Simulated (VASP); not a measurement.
# Biaxial (001) strain of bcc vanadium from −2 % to +2 %: normal strain, stress and elastic moduli with PBEsol

We calculate how body-centred cubic vanadium responds when equal strain is imposed along both in-plane axes of (001) and the normal is left free of stress. This is the situation of a coherent film on a substrate, where the lattice mismatch fixes the in-plane strain. A designer then needs the change in layer spacing, the stress that the film carries and the energy that it stores. Strains are measured against the crystal relaxed with PBEsol, and energies are per atom above that crystal. Tension is positive. The strained cell is body-centred tetragonal, and its single atom stays fixed by symmetry, so the response comes from the cell shape alone.

## How the numbers were made

The start is an entry of the ASE's table of reference states database. The crystal was relaxed with PBEsol. Equal strain is imposed in the (001) plane; the strain along the normal is adjusted until the normal stress vanishes, and the atoms are relaxed with PBEsol. VASP 6.6.1, plane waves with PAW, cutoff 450 eV, no spin polarisation, no spin-orbit coupling, k mesh 27×27×27, static lattice. The same in all rows: band gap on the k mesh at PBEsol: 0.000 eV.

Notes on method and selection:

- Runs that did not converge, have known faults or may not be shown are not listed, and runs on Ansatz's PAW sets soft_1 and soft_2 are kept to separate tables.

Columns:

- strain (%): strain in the plane (tension positive).
- normal strain (%): strain along the normal.
- stress (GPa): in-plane stress, tension positive.
- strain energy (meV/atom): energy per atom above the relaxed crystal.

Input lines of one member:

```
PREC = Accurate
ENCUT = 450
EDIFF = 1E-07
NELM = 120
ISMEAR = 1
SIGMA = 0.15
LREAL = .FALSE.
ALGO = Normal
GGA = PS
NBANDS = 12
LASPH = .TRUE.
LORBIT = 11
KPAR = 2
IBRION = 1
NSW = 25
```

Command (options for logging and memory left out): `mpirun -np 2 vasp_std`

## Computed values

| member | strain (%) | normal strain (%) | stress (GPa) | strain energy (meV/atom) |
| --- | --- | --- | --- | --- |
| −2 % | −2.0 | 2.106 | −6.20 | 11.23 |
| −1.5 % | −1.5 | 1.556 | −4.59 | 6.58 |
| −1 % | −1.0 | 1.019 | −3.02 | 3.18 |
| −0.5 % | −0.5 | 0.496 | −1.48 | 1.04 |
| 0 % | 0.0 | −0.018 | 0.02 | 0.10 |
| +0.5 % | 0.5 | −0.516 | 1.48 | 0.35 |
| +1 % | 1.0 | −1.012 | 2.89 | 1.77 |
| +1.5 % | 1.5 | −1.511 | 4.21 | 4.31 |
| +2 % | 2.0 | −2.024 | 5.42 | 7.90 |

normal strain (%) against strain (%):

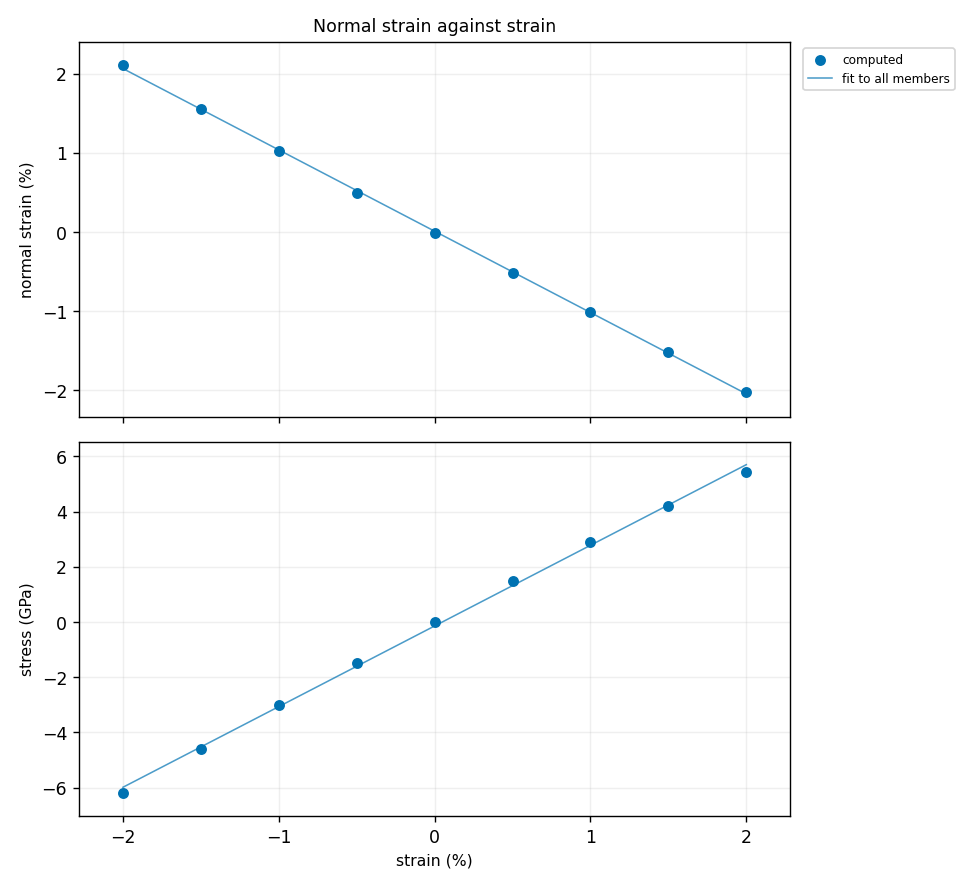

Least-squares fits to the whole series, with x = strain (%); R² and errors in the fitted variable (y, or ln y where the fit is in ln y):

| y | members | fit | R² | rms residual | leave-one-out rms | the same for the mean of the others |
| --- | --- | --- | --- | --- | --- | --- |
| normal strain (%) | 9 | y = 0.01067 − 1.027 x | 1.00 | 0.023 | 0.032 | 1.5 |
| stress (GPa) | 9 | y = −0.1411 + 2.922 x | 1.00 | 0.15 | 0.22 | 4.2 |

## Why the values move as they do

In-plane tension thins the crystal along the normal, and compression thickens it. Between −0.5 % and +0.5 % the normal strain changes by (−0.516 − 0.496) / 1.0 = −1.012 % per % of in-plane strain. Keeping the volume constant would require about −2, so the volume grows under tension by roughly 1 % per %. The crystal settles where the cost of changing its volume balances the cost of changing its shape.

Over the same interval the stress rises by (1.48 + 1.48) / 1.0 = 2.96 GPa per %, which gives a biaxial modulus M of 2.96 × 100 = 296 GPa.

For a cubic crystal with a stress-free normal, the normal strain is −2 C₁₂/C₁₁ times the in-plane strain, and M = C₁₁ (1 − r)(1 + 2r) with r = C₁₂/C₁₁. The two slopes therefore fix two constants:

- r = 1.012 / 2 = 0.506
- C₁₁ = 296 / ((1 − 0.506) × (1 + 2 × 0.506)) = 298 GPa
- C₁₂ = 0.506 × 298 = 151 GPa
- bulk modulus = (298 + 2 × 151) / 3 = 200 GPa
- tetragonal shear modulus = (298 − 151) / 2 = 73.5 GPa

The shear constant C₄₄ does not enter this deformation.

The stress curve bends. From −2 % to −1.5 % its slope is (6.20 − 4.59) / 0.5 = 3.22 GPa per %; from +1.5 % to +2 % it is (5.42 − 4.21) / 0.5 = 2.42 GPa per %. The sign is what anharmonic bonding would give: compression brings the atoms onto the steeper, repulsive side of their interaction, while tension moves them to the flatter side.

The strain energy is close to quadratic once opposite strains are averaged and the value at 0 % is subtracted. This gives (11.23 + 7.90) / 2 − 0.10 = 9.47 meV/atom at 2 % and (3.18 + 1.77) / 2 − 0.10 = 2.38 meV/atom at 1 %. Their ratio is 9.47 / 2.38 = 3.98, against 4 for a parabola.

## Residuals

Largest departures from the fit to the whole series:

| member | normal strain (%) | fit | computed − fit | in rms residuals |
| --- | --- | --- | --- | --- |
| −2 % | 2.106 | 2.065 | +0.041 | 1.8 |
| 0 % | −0.018 | 0.011 | −0.029 | 1.3 |
| −0.5 % | 0.496 | 0.524 | −0.028 | 1.2 |
| +2 % | −2.024 | −2.043 | +0.019 | 0.9 |

In normal strain the −2 % row lies farthest from the straight line, at +0.041 %. The +2 % row is also above the line, and the −0.5 % and 0 % rows are below it. This is the pattern of a gently curved response, not of a faulty row. The small tensile stress left in the reference crystal draws the free normal in slightly, as the −0.018 % of the 0 % row shows. It should shift every row by a similar amount, so it does not cause the curvature.

The energies show a larger oddity. Measured from the 0 % row, −2 % costs 11.23 − 0.10 = 11.13 meV/atom and +2 % costs 7.90 − 0.10 = 7.80 meV/atom, a ratio of 11.13 / 7.80 = 1.43. Summing the tabulated stresses over strain by the trapezium rule gives a ratio of work of only about 1.1. Most of the asymmetry is therefore not elastic.

The likeliest cause is the finite plane-wave basis, through what is called Pulay stress. The computed stress is the slope of the energy for a fixed set of plane waves. The energies of the rows are compared at a fixed cutoff instead, where a larger cell holds more plane waves. The cell with zero computed stress is then slightly smaller than the cell of lowest energy at this cutoff. Expansion from it looks too cheap and compression too costly. The finite basis probably also accounts for the 0.10 meV/atom at 0 %, which is far more than the residual stress could store. A higher cutoff should reduce both.

## Short exercises

**What stress and layer spacing should we expect in a film at +0.8 % strain?**

The strain lies 0.6 of the way from the +0.5 % row to the +1 % row.

- Stress: 1.48 + 0.6 × (2.89 − 1.48) = 2.33 GPa, tensile.
- Normal strain: −0.516 − 0.6 × (1.012 − 0.516) = −0.814 %, so the layer spacing shrinks by about 0.8 %.

**Up to what strain does a single modulus give the stress to within 5 %?**

We take 2.96 GPa per % and start from the 0.02 GPa of the 0 % row.

- At +1 % the line gives 0.02 + 2.96 × 1 = 2.98 GPa against 2.89 computed, 3 % too high.
- At +1.5 % it gives 0.02 + 2.96 × 1.5 = 4.46 GPa against 4.21, 6 % too high.
- At −1.5 % it gives 0.02 − 2.96 × 1.5 = −4.42 GPa against −4.59, 4 % too small in size.
- At −2 % it gives 0.02 − 2.96 × 2 = −5.90 GPa against −6.20, 5 % too small in size.

Among the calculated strains, the tolerance is met from −2 % to +1 %. Beyond that on the tensile side, the tabulated stresses should be used.

**Which strain energy should enter a film model at 1 % mismatch?**

The raw values, 3.18 meV/atom in compression and 1.77 in tension, probably contain the effect of the slightly too small reference cell with opposite signs. Their average less the 0 % value, about 2.4 meV/atom, largely removes it and serves for either sign of mismatch.

## Conclusions and limits

Linear elasticity describes the stress to about 3 % for strains up to 1 % of either sign, and it fails sooner in tension than in compression. The normal strain stays closer to a straight line than the stress does. For moduli, use the slope of the stress, or energies averaged over opposite strains; the energy at one sign of strain alone would mislead.

The lattice is static. Thermal expansion and vibrations would normally lower the moduli, so a warm crystal should be softer than these values. PBEsol also tends to make the lattices of 3d metals too short and too stiff, which acts in the same direction. No measured moduli are compared here. The crystal is free of defects, so the table gives elastic stress only; a real film may relax by forming dislocations before it reaches the larger strains.

[Logs are printed without paths, hosts, clocks, repeated set-up lines and the standing remarks that a program may print on its own settings, such as how far it seeks lower states.]
